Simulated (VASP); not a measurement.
# Splitting of the Δ conduction valleys of GaP under uniaxial [001] stress at the TB-mBJ level with spin-orbit coupling

In a strained GaP layer or contact, the current depends on which conduction valleys hold the electrons, because each valley is heavy along its own axis and light across it. In the cubic crystal the valleys along [001], [100] and [010] are equivalent; stress along [001] sets the first apart from the other two. The question is how large the separation becomes and which valley ends lowest. Valley energies are calculated with TB-mBJ and spin-orbit coupling for axial strains from −2 % to +2 %, and are counted from the valence-band top at the zone centre of the same cell. The splitting is the [100] valley less the [001] valley, so a positive value means that [001] is lower.

## Set-up

The start is a typed prototype cell. The crystal was relaxed with LDA. Strain is imposed along [001]; the strain across the axis is adjusted until the stress across it vanishes, and the atoms are relaxed with LDA. VASP 6.6.1, plane waves with PAW, cutoff 450 eV, no spin polarisation. Band edges are single points at TB-mBJ with spin-orbit coupling on these cells, k mesh 8×8×8, read on short lines of k points at the zone centre and through the valleys; energies are counted from the valence-band top at the zone centre.  All levels use the PAW data sets made with LDA.

Notes on method and selection:

- A valley's energy from the valence-band top holds the shift of that top as well as the shift of the valley.
- The TB-mBJ parameter c is fixed anew from the density of each cell, so it changes along the series.
- Runs that did not converge, have known faults or may not be shown are not listed, and runs on Ansatz's PAW sets soft_1 and soft_2 are kept to separate tables.

Columns:

- strain (%): strain along the axis (tension positive).
- splitting (eV): valley along [100] less valley along [001].
- Δ [001] (eV): minimum of the conduction band along Γ–X in the [001] direction.
- Δ [100] (eV): minimum of the conduction band along Γ–X in the [100] direction.
- L [111] (eV): conduction level at L along [111].
- Γ level (eV): lowest conduction level at Γ.

Input lines of one member:

```
PREC = Accurate
ENCUT = 450
EDIFF = 1E-06
NELM = 150
ISMEAR = 0
SIGMA = 0.02
LREAL = .FALSE.
ALGO = Normal
METAGGA = MBJ
LASPH = .TRUE.
LNONCOLLINEAR = .TRUE.
NBANDS = 28
GGA_COMPAT = .FALSE.
LSORBIT = .TRUE.
KPAR = 3
```

Command (options for logging and memory left out): `mpirun -np 3 vasp_ncl`

## Table of results

| member | strain (%) | splitting (eV) | Δ [001] (eV) | Δ [100] (eV) | L [111] (eV) | Γ level (eV) |
| --- | --- | --- | --- | --- | --- | --- |
| −2 % | −2.0 | 0.223 | 2.037 | 2.260 | 2.572 | 3.157 |
| −1.5 % | −1.5 | 0.166 | 2.103 | 2.269 | 2.599 | 3.169 |
| −1 % | −1.0 | 0.110 | 2.168 | 2.278 | 2.623 | 3.179 |
| −0.5 % | −0.5 | 0.054 | 2.231 | 2.285 | 2.643 | 3.187 |
| 0 % | 0.0 | 0.000 | 2.288 | 2.288 | 2.655 | 3.188 |
| +0.5 % | 0.5 | −0.054 | 2.314 | 2.260 | 2.635 | 3.159 |
| +1 % | 1.0 | −0.108 | 2.341 | 2.232 | 2.613 | 3.128 |
| +1.5 % | 1.5 | −0.161 | 2.366 | 2.205 | 2.588 | 3.096 |
| +2 % | 2.0 | −0.212 | 2.391 | 2.178 | 2.560 | 3.062 |

splitting (eV) against strain (%):

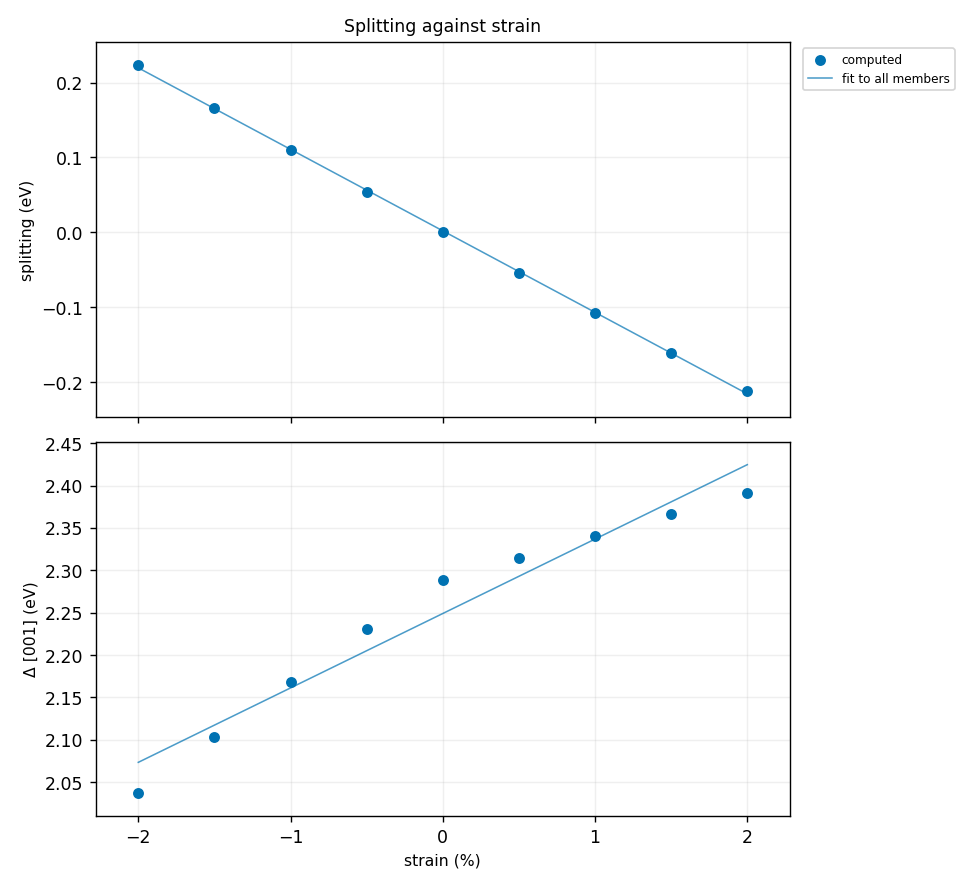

Least-squares fits to the whole series, with x = strain (%); R² and errors in the fitted variable (y, or ln y where the fit is in ln y):

| y | members | fit | R² | rms residual | leave-one-out rms | the same for the mean of the others |
| --- | --- | --- | --- | --- | --- | --- |
| splitting (eV) | 9 | y = 0.002000 − 0.1088 x | 1.00 | 0.0021 | 0.0030 | 0.16 |
| Δ [001] (eV) | 9 | y = 2.249 + 0.08780 x | 0.95 | 0.025 | 0.034 | 0.13 |

## The trend and its physics

Compression along [001] makes the [001] valley the lowest conduction level; tension makes the [100] valley lowest, together with its symmetry partner [010]. The splitting runs from 0.223 eV at −2 % to −0.212 eV at +2 %. In every row the lowest Δ valley also lies below the L and Γ levels.

A linear deformation-potential model gives this behaviour. Let $\varepsilon$ be the axial strain.

1. With no stress across the axis, the transverse strain is taken as $-\nu\varepsilon$ with constant $\nu$.
2. A valley shifts by $\Xi_d$ times the volume strain plus $\Xi_u$ times the strain along its own axis.
3. The valence-band top, which is the zero of energy, is assumed to shift by $V\varepsilon$.

The two valley energies are then

$$E_{001}=E_0+[\Xi_d(1-2\nu)+\Xi_u-V]\,\varepsilon ,$$

$$E_{100}=E_0+[\Xi_d(1-2\nu)-\nu\,\Xi_u-V]\,\varepsilon .$$

Writing $P$ for the first bracket and $B=\Xi_u(1+\nu)$ leaves three parameters:

$$E_{001}=E_0+P\varepsilon,\qquad E_{100}=E_0+(P-B)\varepsilon,\qquad E_{100}-E_{001}=-B\varepsilon .$$

The volume term and the valence-band shift cancel in the splitting, which therefore measures the valleys alone. A positive $\Xi_u$ means that shortening an axis lowers the valley along it relative to the others.

The fitted slope of the splitting gives $B$ = 0.1088 eV per % of strain, or 0.1088 × 100 = 10.88 eV per unit strain. With $\nu$ roughly 0.3, $\Xi_u$ is roughly 10.88 / 1.3 ≈ 8 eV. The leave-one-out error of this fit is 0.0030 eV, against 0.16 eV for the mean of the other members.

## The model against the table

The three parameters are fixed on the unstrained member and on −1 %, with strain in % and slopes in eV per %:

- $E_0$ = 2.288 eV
- $P$ = (2.288 − 2.168) / 1.0 = 0.120 eV per %
- $B$ = 0.110 / 1.0 = 0.110 eV per %
- $P-B$ = 0.120 − 0.110 = 0.010 eV per %

**−0.5 %**
- [001]: 2.288 − 0.5 × 0.120 = 2.228 eV; table 2.231 eV
- [100]: 2.288 − 0.5 × 0.010 = 2.283 eV; table 2.285 eV
- splitting: 0.5 × 0.110 = 0.055 eV; table 0.054 eV

**−2 %**
- [001]: 2.288 − 2.0 × 0.120 = 2.048 eV; table 2.037 eV
- [100]: 2.288 − 2.0 × 0.010 = 2.268 eV; table 2.260 eV
- splitting: 2.0 × 0.110 = 0.220 eV; table 0.223 eV

**+1 %**
- [001]: 2.288 + 1.0 × 0.120 = 2.408 eV; table 2.341 eV
- [100]: 2.288 + 1.0 × 0.010 = 2.298 eV; table 2.232 eV
- splitting: −1.0 × 0.110 = −0.110 eV; table −0.108 eV

**+2 %**
- [001]: 2.288 + 2.0 × 0.120 = 2.528 eV; table 2.391 eV
- [100]: 2.288 + 2.0 × 0.010 = 2.308 eV; table 2.178 eV
- splitting: −2.0 × 0.110 = −0.220 eV; table −0.212 eV

Parameters taken from the compressed side thus carry the splitting across zero strain to within 0.008 eV. The separate valley energies do not carry over: under tension both are computed well below the model, by nearly the same amount.

## Members off the line

Largest departures from the fit to the whole series:

| member | splitting (eV) | fit | computed − fit | in rms residuals |
| --- | --- | --- | --- | --- |
| +2 % | −0.212 | −0.216 | +0.004 | 1.7 |
| −2 % | 0.223 | 0.220 | +0.003 | 1.6 |
| −0.5 % | 0.054 | 0.056 | −0.002 | 1.1 |
| 0 % | 0.000 | 0.002 | −0.002 | 1.0 |

At +2 % the computed valleys lie below the model by 2.528 − 2.391 = 0.137 eV for [001] and 2.308 − 2.178 = 0.130 eV for [100]. The third assumption fails here. Strain splits the degenerate valence-band top, and the zero of energy follows whichever branch is upper. That branch rises relative to the valence-band average under either sign of strain, so the shift has a kink at zero. The L and Γ levels show the same kink: between the half-per-cent steps on either side of zero, the slopes of all four levels drop by about 0.06 eV per %. A single line through the [001] energies is therefore misleading despite its R² of 0.95; it misses the unstrained value by 2.288 − 2.249 = 0.039 eV.

The splitting itself is slightly stronger under compression, 0.223 / 2.0 = 0.112 eV per % at −2 % against 0.212 / 2.0 = 0.106 eV per % at +2 %. The transverse strain per unit of axial strain is also a little smaller at the tensile end, which has the right sign but explains only a minor part. The remainder lies beyond the linear model; a second-order response of the valleys and the change of the TB-mBJ parameter c with strain may both contribute, and the table does not separate them.

## What to take away

Between −2 % and +2 %, the splitting is close to −0.109 eV per % of axial strain, with [001] lowest under compression and [100] and [010] lowest under tension. At half a per cent it is already about twice the thermal energy at room temperature. The gap to the lowest valley is smaller in every strained row than in the unstrained one.

The splitting covers a range of 0.223 + 0.212 = 0.435 eV over the series. Lattice vibration, which is left out, lowers the gap but should shift the valleys largely together, so it should affect the splitting much less than the gap.

[Logs are printed without paths, hosts, clocks, repeated set-up lines and the standing remarks that a program may print on its own settings, such as how far it seeks lower states.]
